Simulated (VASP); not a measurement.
# Pressure and energy of WC (P-6m2) under even scaling of the cell by up to 6 % in volume, PBEsol

Squeezing a stiff crystal by a few per cent in volume takes more pressure than the tension needed to stretch it by the same amount, although both start from the same balanced state. The problem is to find how large this asymmetry is in tungsten carbide, and how pressure and energy are tied together. The answer matters for cutting tools and hard-metal parts, where carbide grains carry high contact loads and residual stresses.

The cell is scaled evenly at PBEsol level with a static lattice. Volume is counted from the minimum of the fitted energy curve, pressure is positive in compression, and energy is given per atom above the lowest point of the series. The pressure at 10.07 Å³ per atom is to be found from the other members.

## Set-up

A cell from a diffraction database, relaxed at this level and then scaled evenly, fractional positions kept. VASP 6.6.1, plane waves with PAW, PBEsol, cutoff 520 eV, k mesh 9×9×8, no spin polarisation, no spin-orbit coupling, static lattice. A Birch-Murnaghan fit to the energies has its minimum at 10.28 Å³ per atom.

Notes on method and selection:

- The pressure is that of a finite plane-wave basis, so it need not vanish exactly at the minimum of the energy.
- Only series whose fit has its minimum inside the range and an error under 0.5 meV per atom are shown.
- Runs that did not converge, have known faults or may not be shown are not listed, and runs on Ansatz's PAW sets soft_1 and soft_2 are kept to separate tables.

Columns:

- volume change (%): volume relative to the fitted equilibrium volume.
- pressure (GPa): pressure from the stress tensor (positive: compressed).
- energy (meV/atom): energy per atom above the lowest point of the series.

Input lines of one member:

```
PREC = Accurate
ENCUT = 520
EDIFF = 1E-06
NELM = 100
ISMEAR = 0
SIGMA = 0.05
LREAL = .FALSE.
ALGO = Normal
GGA = PS
NBANDS = 11
LORBIT = 11
KPAR = 2
ISIF = 2
```

Command (options for logging and memory left out): `mpirun -np 2 vasp_std`

## The series

| member | volume change (%) | pressure (GPa) | energy (meV/atom) |
| --- | --- | --- | --- |
| 9.66 Å³ | −6.03 | 30.14 | 55.3 |
| 9.87 Å³ | −4.03 | 19.00 | 23.7 |
| 10.07 Å³ | −2.03 | ? | ? |
| 10.28 Å³ | −0.03 | 0.05 | 0.0 |
| 10.48 Å³ | 1.97 | −8.03 | 5.1 |
| 10.69 Å³ | 3.97 | −15.30 | 20.0 |
| 10.90 Å³ | 5.97 | −21.83 | 43.8 |

Cells marked ? are withheld until the estimate has been made.

Least-squares fits to the members shown, with x = volume change (%); R² and errors in the fitted variable (y, or ln y where the fit is in ln y):

| y | members | fit | R² | rms residual | leave-one-out rms | the same for the mean of the others |
| --- | --- | --- | --- | --- | --- | --- |
| pressure (GPa) | 6 | y = −0.05243 − 4.309 x + 0.1130 x² | 1.00 | 0.092 | 0.26 | 22 |
| energy (meV/atom) | 6 | y = 0.3566 − 0.7077 x + 1.363 x² | 1.00 | 1.0 | 3.0 | 24 |

## The trend and its physics

The pressure falls from row to row as the cell grows, and ever more slowly. Between the two smallest cells the slope is (19.00 − 30.14) / 2.00 = −5.57 GPa per per cent of volume; between the two largest it is (−21.83 + 15.30) / 2.00 = −3.27 GPa per per cent. The crystal thus stiffens in compression and softens in expansion.

The usual explanation lies in the range of the forces. The repulsion between overlapping electron shells grows steeply as the W–C distance shrinks, while the attraction from bonding between W 5d and C 2p states varies more gently. In expansion the repulsion fades first, and the restoring force grows less than in proportion to the strain.

The bulk modulus is $B = -V\,\mathrm{d}P/\mathrm{d}V$, which at equilibrium is 100 times the fall in pressure per per cent of volume. The quadratic fit gives 4.309 × 100 = 431 GPa, a very stiff solid. This belongs to even scaling. Away from equilibrium the stress along c is larger in size than that in the plane, so a cell free to adjust its axial ratio would lower its energy and yield somewhat more easily.

The energy carries the same asymmetry: 55.3 meV per atom at −6.03 % against 43.8 at 5.97 %. It follows from the pressure through $P = -\mathrm{d}E/\mathrm{d}V$. From 1.97 to 3.97 % the mean tension is (8.03 + 15.30) / 2 = 11.67 GPa and the volume grows by a fraction (3.97 − 1.97) / 100 = 0.0200 of the equilibrium volume, or 0.0200 × 10.28 = 0.206 Å³ per atom. With 1 eV/Å³ = 160.2 GPa, the work is 1000 × 11.67 × 0.206 / 160.2 = 15.0 meV per atom. The energy column gives 20.0 − 5.1 = 14.9, so stress and energy agree well.

## Estimating the withheld member

Plain estimates from the members shown:

- 10.07 Å³, fit at x = −2.03: 9.16 GPa
- 10.07 Å³, straight-line interpolation between 9.87 Å³ and 10.28 Å³: w = (−2.03 − (−4.03)) / (−0.03 − (−4.03)) = 0.500, so 19.00 + 0.500 × (0.05 − 19.00) = 9.52 GPa

The straight line gives 9.52 GPa, which is too high because the pressure curve bends upwards and a chord lies above it. The quadratic fit, 9.16 GPa, includes the bend but not its change with volume; at the neighbouring 9.87 Å³ it gives −0.05243 + 4.309 × 4.03 + 0.1130 × 4.03 × 4.03 = 19.15 GPa, against 19.00.

A cubic through the two nearest members on each side includes that change. The volumes are spaced in steps of 2.00 %, so the Lagrange weights are −1/6, 2/3, 2/3 and −1/6 for 9.66, 9.87, 10.28 and 10.48 Å³:

(2/3) × (19.00 + 0.05) − (1/6) × (30.14 − 8.03) = 9.015, or 9.02 GPa.

The same route can be tried on three shown members, each left out in turn and found from four others. The size of a member's weight is the product of the distances from the target to the other three members, divided by the product of the distances from that member to the same three. In steps of 2.00 %, the weight of 10.69 Å³ is thus (2 × 1 × 3) / (4 × 1 × 1) = 1.5 in size when 10.28 Å³ is sought, and (3 × 1 × 2) / (4 × 2 × 1) = 0.75 when 10.48 Å³ is sought.

- 9.87 Å³: 0.4 × 30.14 + 2 × 0.05 − 2 × (−8.03) + 0.6 × (−15.30) = 19.04, against 19.00.
- 10.28 Å³: 0.1 × 19.00 + 2 × (−8.03) − 1.5 × (−15.30) + 0.4 × (−21.83) = 0.06, against 0.05.
- 10.48 Å³: −0.05 × 19.00 + 0.5 × 0.05 + 0.75 × (−15.30) − 0.2 × (−21.83) = −8.03, as shown.

The root-mean-square miss is 0.02 GPa, which is taken as the error. Composition and structure type stay the same along the series, so no further shift is called for.

**Committed estimate, 10.07 Å³: pressure = 9.02 ± 0.02 GPa.**

## Result

| member | volume change (%) | pressure (GPa) | energy (meV/atom) |
| --- | --- | --- | --- |
| 10.07 Å³ | −2.03 | 9.01 | 5.8 |

| member | estimate | pressure (GPa) | computed | estimate − computed | miss in error bars |
| --- | --- | --- | --- | --- | --- |
| 10.07 Å³ | committed | 9.02 | 9.01 | +0.01 | 0.5 |
| 10.07 Å³ | fit | 9.16 | 9.01 | +0.15 |  |
| 10.07 Å³ | interpolation | 9.52 | 9.01 | +0.51 |  |

pressure (GPa) against volume change (%):

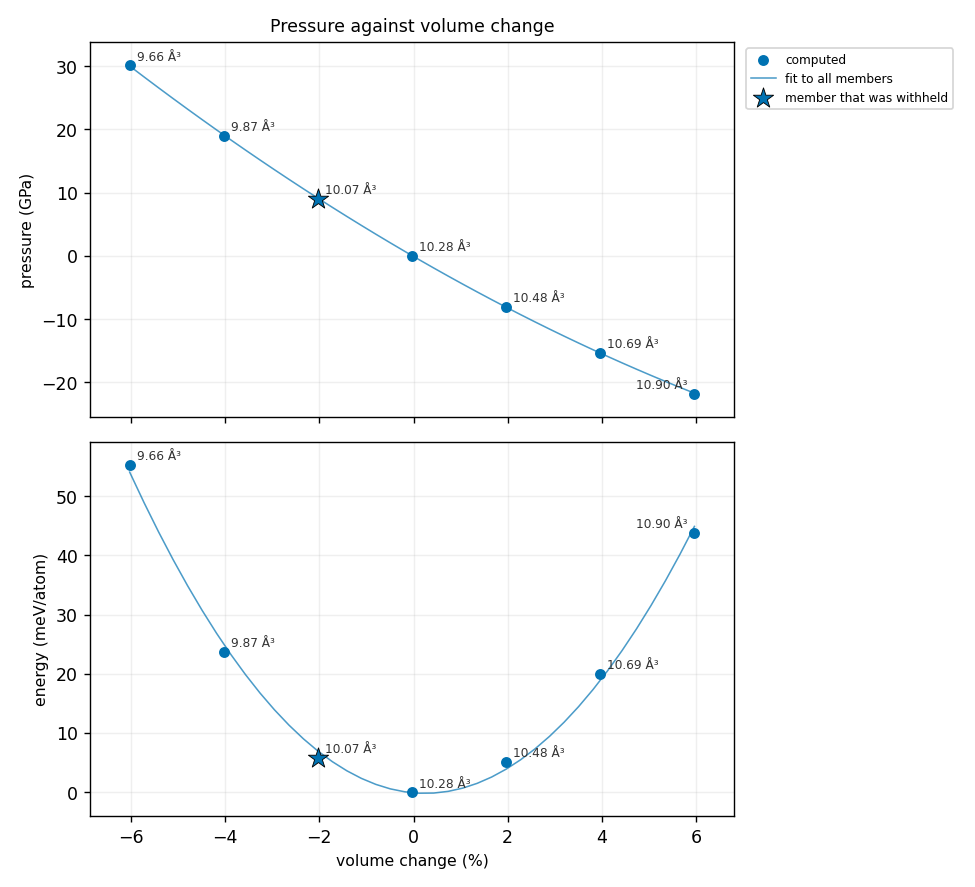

The estimate of 9.02 GPa lies 0.01 GPa above the computed 9.01 GPa, inside its error bar of 0.02 GPa. It did better than the quadratic fit, which was 0.15 GPa too high, and the straight line, which was 0.51 GPa too high. Both errors have the expected sign: the chord ignores the bend of the pressure curve, and the quadratic keeps the bend constant.

With the row filled in, the change of the bend can be read directly. The steps in pressure from row to row shrink by 1.15 GPa at the compressed end, (30.14 − 19.00) − (19.00 − 9.01), but by only (15.30 − 8.03) − (21.83 − 15.30) = 0.74 GPa at the expanded end. This fits a repulsion that steepens quickly at short distance, though a smooth curve of this kind would follow from other force laws too.

The new pressure also agrees with the energies. Simpson's rule from −4.03 to −0.03 % gives a mean of (19.00 + 4 × 9.01 + 0.05) / 6 = 9.18 GPa, and the volume changes by a fraction (4.03 − 0.03) / 100 = 0.0400 of the equilibrium volume. The work is then 1000 × 9.18 × 0.0400 × 10.28 / 160.2 = 23.6 meV per atom, against 23.7 in the table.

## Where the trend breaks

Least-squares fits to the whole series, with x = volume change (%); R² and errors in the fitted variable (y, or ln y where the fit is in ln y):

| y | members | fit | R² | rms residual | leave-one-out rms | the same for the mean of the others |
| --- | --- | --- | --- | --- | --- | --- |
| pressure (GPa) | 7 | y = −0.09549 − 4.307 x + 0.1143 x² | 1.00 | 0.098 | 0.26 | 20 |
| energy (meV/atom) | 7 | y = −0.1025 − 0.6781 x + 1.377 x² | 1.00 | 1.1 | 2.9 | 23 |

Largest departures from the fit to the whole series:

| member | pressure (GPa) | fit | computed − fit | in rms residuals |
| --- | --- | --- | --- | --- |
| 9.87 Å³ | 19.00 | 19.12 | −0.12 | 1.2 |
| 10.07 Å³ | 9.01 | 9.12 | −0.11 | 1.1 |
| 9.66 Å³ | 30.14 | 30.03 | +0.11 | 1.1 |
| 10.48 Å³ | −8.03 | −8.14 | +0.11 | 1.1 |

None stands out: the four largest departures are all 0.11 or 0.12 GPa in size, close to the rms residual. Their signs follow a pattern, positive at 9.66 Å³, negative at 9.87 and 10.07 Å³ and positive again at 10.48 Å³, which is what a quadratic leaves behind when the curvature itself falls with volume. The cause is therefore the form of the fit and not a fault in any one cell.

## Summary

Within about 6 % of the equilibrium volume, evenly scaled WC stiffens in compression and softens in expansion. At about 6 % the pressure needed to compress it is 30.14 / 21.83 = 1.38 times the tension needed to expand it. For the withheld member, with two neighbours on each side, a cubic came within 0.01 GPa of the computed pressure, while the quadratic fit missed it by 0.15 GPa.

Between −2.03 and 1.97 %, a span of 2.03 + 1.97 = 4.00 %, the pressure falls by (9.01 + 8.03) / 4.00 = 4.26 GPa per per cent, which gives a bulk modulus of 100 × 4.26 = 426 GPa. This local value is preferable to the 431 GPa from the quadratic fit, whose slope is distorted by the missing cubic term. A pressure of 1 GPa thus reduces the volume by 1 / 4.26 = 0.23 %, and each cell length by about 0.08 %.

The static lattice leaves out the motion of the atoms. Zero-point and thermal motion would add an outward pressure and so enlarge the equilibrium volume slightly; in a solid this stiff the change is small.

[Logs are printed without paths, hosts, clocks, repeated set-up lines and the standing remarks that a program may print on its own settings, such as how far it seeks lower states.]

[On method and selection: Where rows or columns differ in functional or spin-orbit coupling, non-spherical gradient terms in the PAW spheres (LASPH) may be on in some and off in others.]
